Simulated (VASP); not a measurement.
# Pressure and energy of rock-salt ZrC between −6 % and +6 % volume, AM05 static lattice

A ceramic spacer in a large-volume press has to carry pressure without shortening too much or storing too much elastic energy, which is released if a seal fails. We consider a ZrC spacer 10 mm long with a face of 10 mm², loaded equally from all sides. Our brief asks for a working pressure of at least 4 GPa, a length loss of at most 0.2 mm and a stored energy of at most 0.3 J/mm³. Among the states that pass, we take the one with the highest pressure.

The calculations give the pressure and energy of a perfect crystal at seven volumes. Volume change is counted from the fitted equilibrium volume of 12.71 Å³ per atom, and energy from the lowest point of the series. Positive pressure means compression.

## How the numbers were made

A cell from a diffraction database, relaxed at this level and then scaled evenly, fractional positions kept. VASP 6.6.1, plane waves with PAW, AM05, cutoff 520 eV, k mesh 8×8×8, no spin polarisation, no spin-orbit coupling, static lattice. A Birch-Murnaghan fit to the energies has its minimum at 12.71 Å³ per atom.

Notes on method and selection:

- The pressure is that of a finite plane-wave basis, so it need not vanish exactly at the minimum of the energy.
- Only series whose fit has its minimum inside the range and an error under 0.5 meV per atom are shown.
- Where rows or columns differ in functional or spin-orbit coupling, non-spherical gradient terms in the PAW spheres (LASPH) may be on in some and off in others.
- Runs that did not converge, have known faults or may not be shown are not listed, and runs on Ansatz's PAW sets soft_1 and soft_2 are kept to separate tables.

Columns:

- volume change (%): volume relative to the fitted equilibrium volume.
- pressure (GPa): pressure from the stress tensor (positive: compressed).
- energy (meV/atom): energy per atom above the lowest point of the series.

Input lines of one member:

```
PREC = Accurate
ENCUT = 520
EDIFF = 1E-06
NELM = 100
ISMEAR = 0
SIGMA = 0.05
LREAL = .FALSE.
ALGO = Normal
GGA = AM
NBANDS = 14
LASPH = .TRUE.
LORBIT = 11
KPAR = 2
ISIF = 2
```

Command (options for logging and memory left out): `mpirun -np 2 vasp_std`

## Computed values

| member | volume change (%) | pressure (GPa) | energy (meV/atom) |
| --- | --- | --- | --- |
| 11.94 Å³ | −6.03 | 16.40 | 37.6 |
| 12.19 Å³ | −4.04 | 10.37 | 16.2 |
| 12.45 Å³ | −2.04 | 4.91 | 4.0 |
| 12.70 Å³ | −0.04 | −0.05 | 0.0 |
| 12.96 Å³ | 1.96 | −4.53 | 3.5 |
| 13.21 Å³ | 3.96 | −8.60 | 13.8 |
| 13.47 Å³ | 5.96 | −12.26 | 30.2 |

pressure (GPa) against volume change (%):

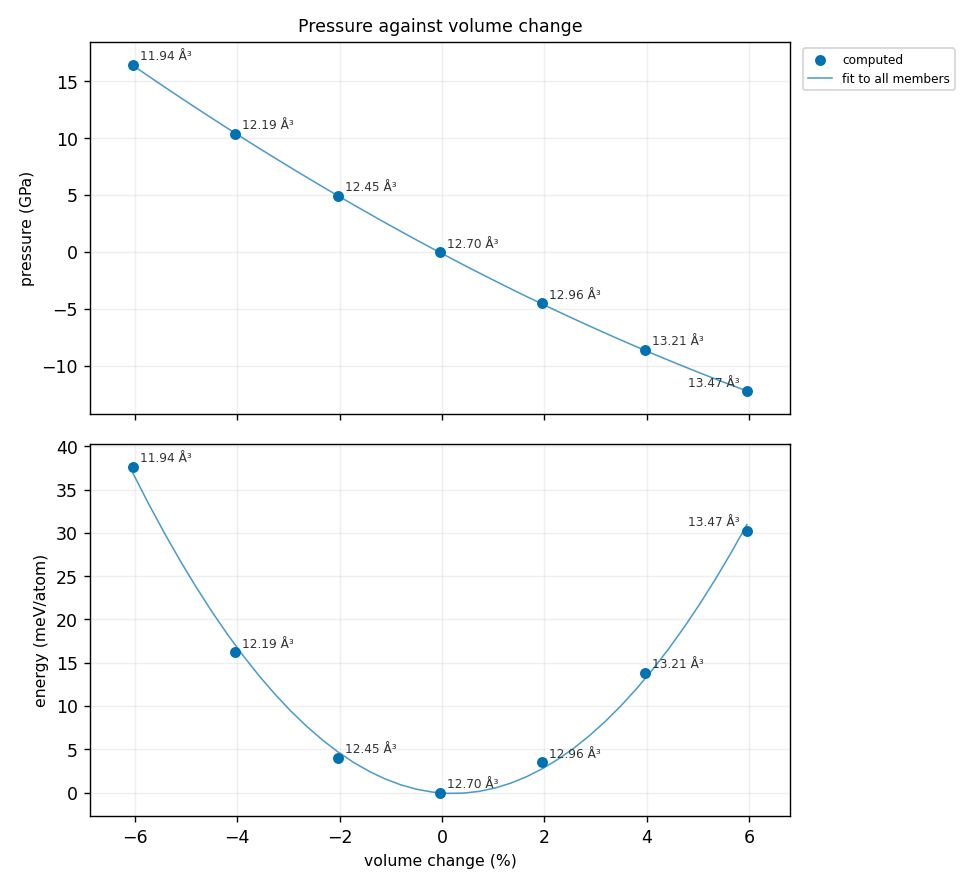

Least-squares fits to the whole series, with x = volume change (%); R² and errors in the fitted variable (y, or ln y where the fit is in ln y):

| y | members | fit | R² | rms residual | leave-one-out rms | the same for the mean of the others |
| --- | --- | --- | --- | --- | --- | --- |
| pressure (GPa) | 7 | y = −0.14763 − 2.3783 x + 0.059265 x² | 1.00 | 0.044 | 0.12 | 11 |
| energy (meV/atom) | 7 | y = −0.05706 − 0.4218 x + 0.9437 x² | 1.00 | 0.71 | 1.9 | 15 |

## Interpretation

The pressure falls at every step from the smallest cell to the largest, from 16.40 to −12.26 GPa. Across the equilibrium volume the slope is (−4.53 − 4.91) / (1.96 + 2.04) = −2.36 GPa per percent, which corresponds to a bulk modulus $B_0$ of about 2.36 × 100 = 236 GPa.

The slope is not constant. Between the two smallest cells it is (10.37 − 16.40) / (−4.04 + 6.03) = −3.03 GPa per percent, and between the two largest (−12.26 + 8.60) / (5.96 − 3.96) = −1.83. The crystal is therefore about 1.7 times as stiff, per percent of volume, at the compressed end as at the expanded end. With $x$ as a fraction of the volume,

$$P \approx -B_0x + \tfrac{1}{2}B_0(1+B_0')x^2 ,$$

and the fitted coefficients give 2 × 0.059265 × 100 / 2.3783 = 4.98 for $1+B_0'$. The bulk modulus thus rises by roughly 4 GPa for each GPa of pressure.

The energy follows from the same stiffness, as $E \approx \tfrac{1}{2}B_0V_0x^2$ near the minimum. It is lopsided further out: 37.6 meV/atom at −6.03 % against 30.2 at +5.96 %.

The cause lies in the Zr–C distance, which in this structure equals the cube root of the volume per atom. It runs from roughly 2.3 Å in the smallest cell to roughly 2.4 Å in the largest. On the standard account of bonding, the Pauli repulsion between overlapping electron clouds grows faster on shortening than the attraction does, so compression costs more than an equal expansion. The columns give only the sum of the two.

## Departures from the trend

Largest departures from the fit to the whole series:

| member | pressure (GPa) | fit | computed − fit | in rms residuals |
| --- | --- | --- | --- | --- |
| 12.19 Å³ | 10.37 | 10.43 | −0.06 | 1.3 |
| 11.94 Å³ | 16.40 | 16.35 | +0.05 | 1.2 |
| 12.96 Å³ | −4.53 | −4.58 | +0.05 | 1.2 |
| 13.47 Å³ | −12.26 | −12.22 | −0.04 | 1.0 |

All seven members can be used. The largest departure from the pressure fit is 0.06 GPa, and the departures change sign along the series in the way a missing cubic term would produce. The parabola for the energy has the same defect: it puts the minimum at 0.4218 / (2 × 0.9437) = +0.22 %, so the equilibrium volume should be taken from the Birch-Murnaghan fit.

The 12.70 Å³ cell shows a small numerical offset. At −0.04 % its pressure should be about 0.04 × 2.36 = +0.09 GPa, but the stress tensor gives −0.05. The difference of −0.14 GPa has the sign and size expected of a finite plane-wave basis, and it is negligible for the brief.

## Choosing a member

The four cells from 12.70 Å³ upwards have negative pressure and fail at once. For the three compressed cells we convert the table with

$$\Delta L = 10\ \text{mm}\,\left[1-(1+x/100)^{1/3}\right],\qquad u = 0.1602\,E/12.71,\qquad F = 10\,P,$$

where $x$ is the volume change in percent, $E$ is in meV/atom, $u$ in J/mm³ of unloaded volume, $P$ in GPa and $F$ in kN. The factor 0.1602 turns meV/Å³ into J/mm³.

- **11.94 Å³:** the face carries 10 × 16.40 = 164 kN. The length loss is roughly 0.21 mm, just over the limit, and the stored energy is 0.1602 × 37.6 / 12.71 = 0.474 J/mm³, well over it. This state fails.
- **12.19 Å³:** the face carries 10 × 10.37 = 104 kN. The length loss is roughly 0.14 mm and the stored energy 0.1602 × 16.2 / 12.71 = 0.204 J/mm³. This state passes.
- **12.45 Å³:** the face carries 10 × 4.91 = 49 kN. The length loss is roughly 0.07 mm and the stored energy 0.1602 × 4.0 / 12.71 = 0.050 J/mm³. This state passes.

The pick is 12.19 Å³, at 10.37 GPa, and the runner-up is 12.45 Å³, at 4.91 GPa.

For the level's own error we allow roughly 10 % in the stiffness, a usual size for functionals of this kind. At a held pressure, length loss and stored energy both scale about inversely with stiffness. If real ZrC is 10 % softer, the pick moves to roughly 0.14 / 0.9 = 0.16 mm and 0.204 / 0.9 = 0.227 J/mm³, and still passes. If it is 10 % stiffer, the 11.94 Å³ state comes down to 0.474 / 1.1 = 0.431 J/mm³, and still fails.

The pick would be overturned if the real stiffness were below about 0.14 / 0.2 = 0.7 of the computed one, or if the permitted length loss were cut to roughly 0.1 mm. In either case the runner-up takes its place.

## What to take away

Between −6 % and +6 % in volume, ZrC at this level resists with about 2.4 GPa per percent near equilibrium, more under compression and less under expansion.

Two effects left out of the table matter for a real part. Real ceramics contain flaws and break in tension at well under 1 GPa, so the states at −4.53 GPa and beyond describe the perfect crystal and not a usable part. Heating at fixed volume adds a positive thermal pressure, about the volume expansion coefficient times the bulk modulus times the temperature rise. With a rough coefficient of 0.00002 per K, a rise of 1000 K gives 0.00002 × 236 × 1000 = 4.7 GPa, which is close to the gap between the pick and the runner-up. A hot spacer therefore reaches a given pressure at a larger volume than the table states.

[Logs are printed without paths, hosts, clocks, repeated set-up lines and the standing remarks that a program may print on its own settings, such as how far it seeks lower states.]
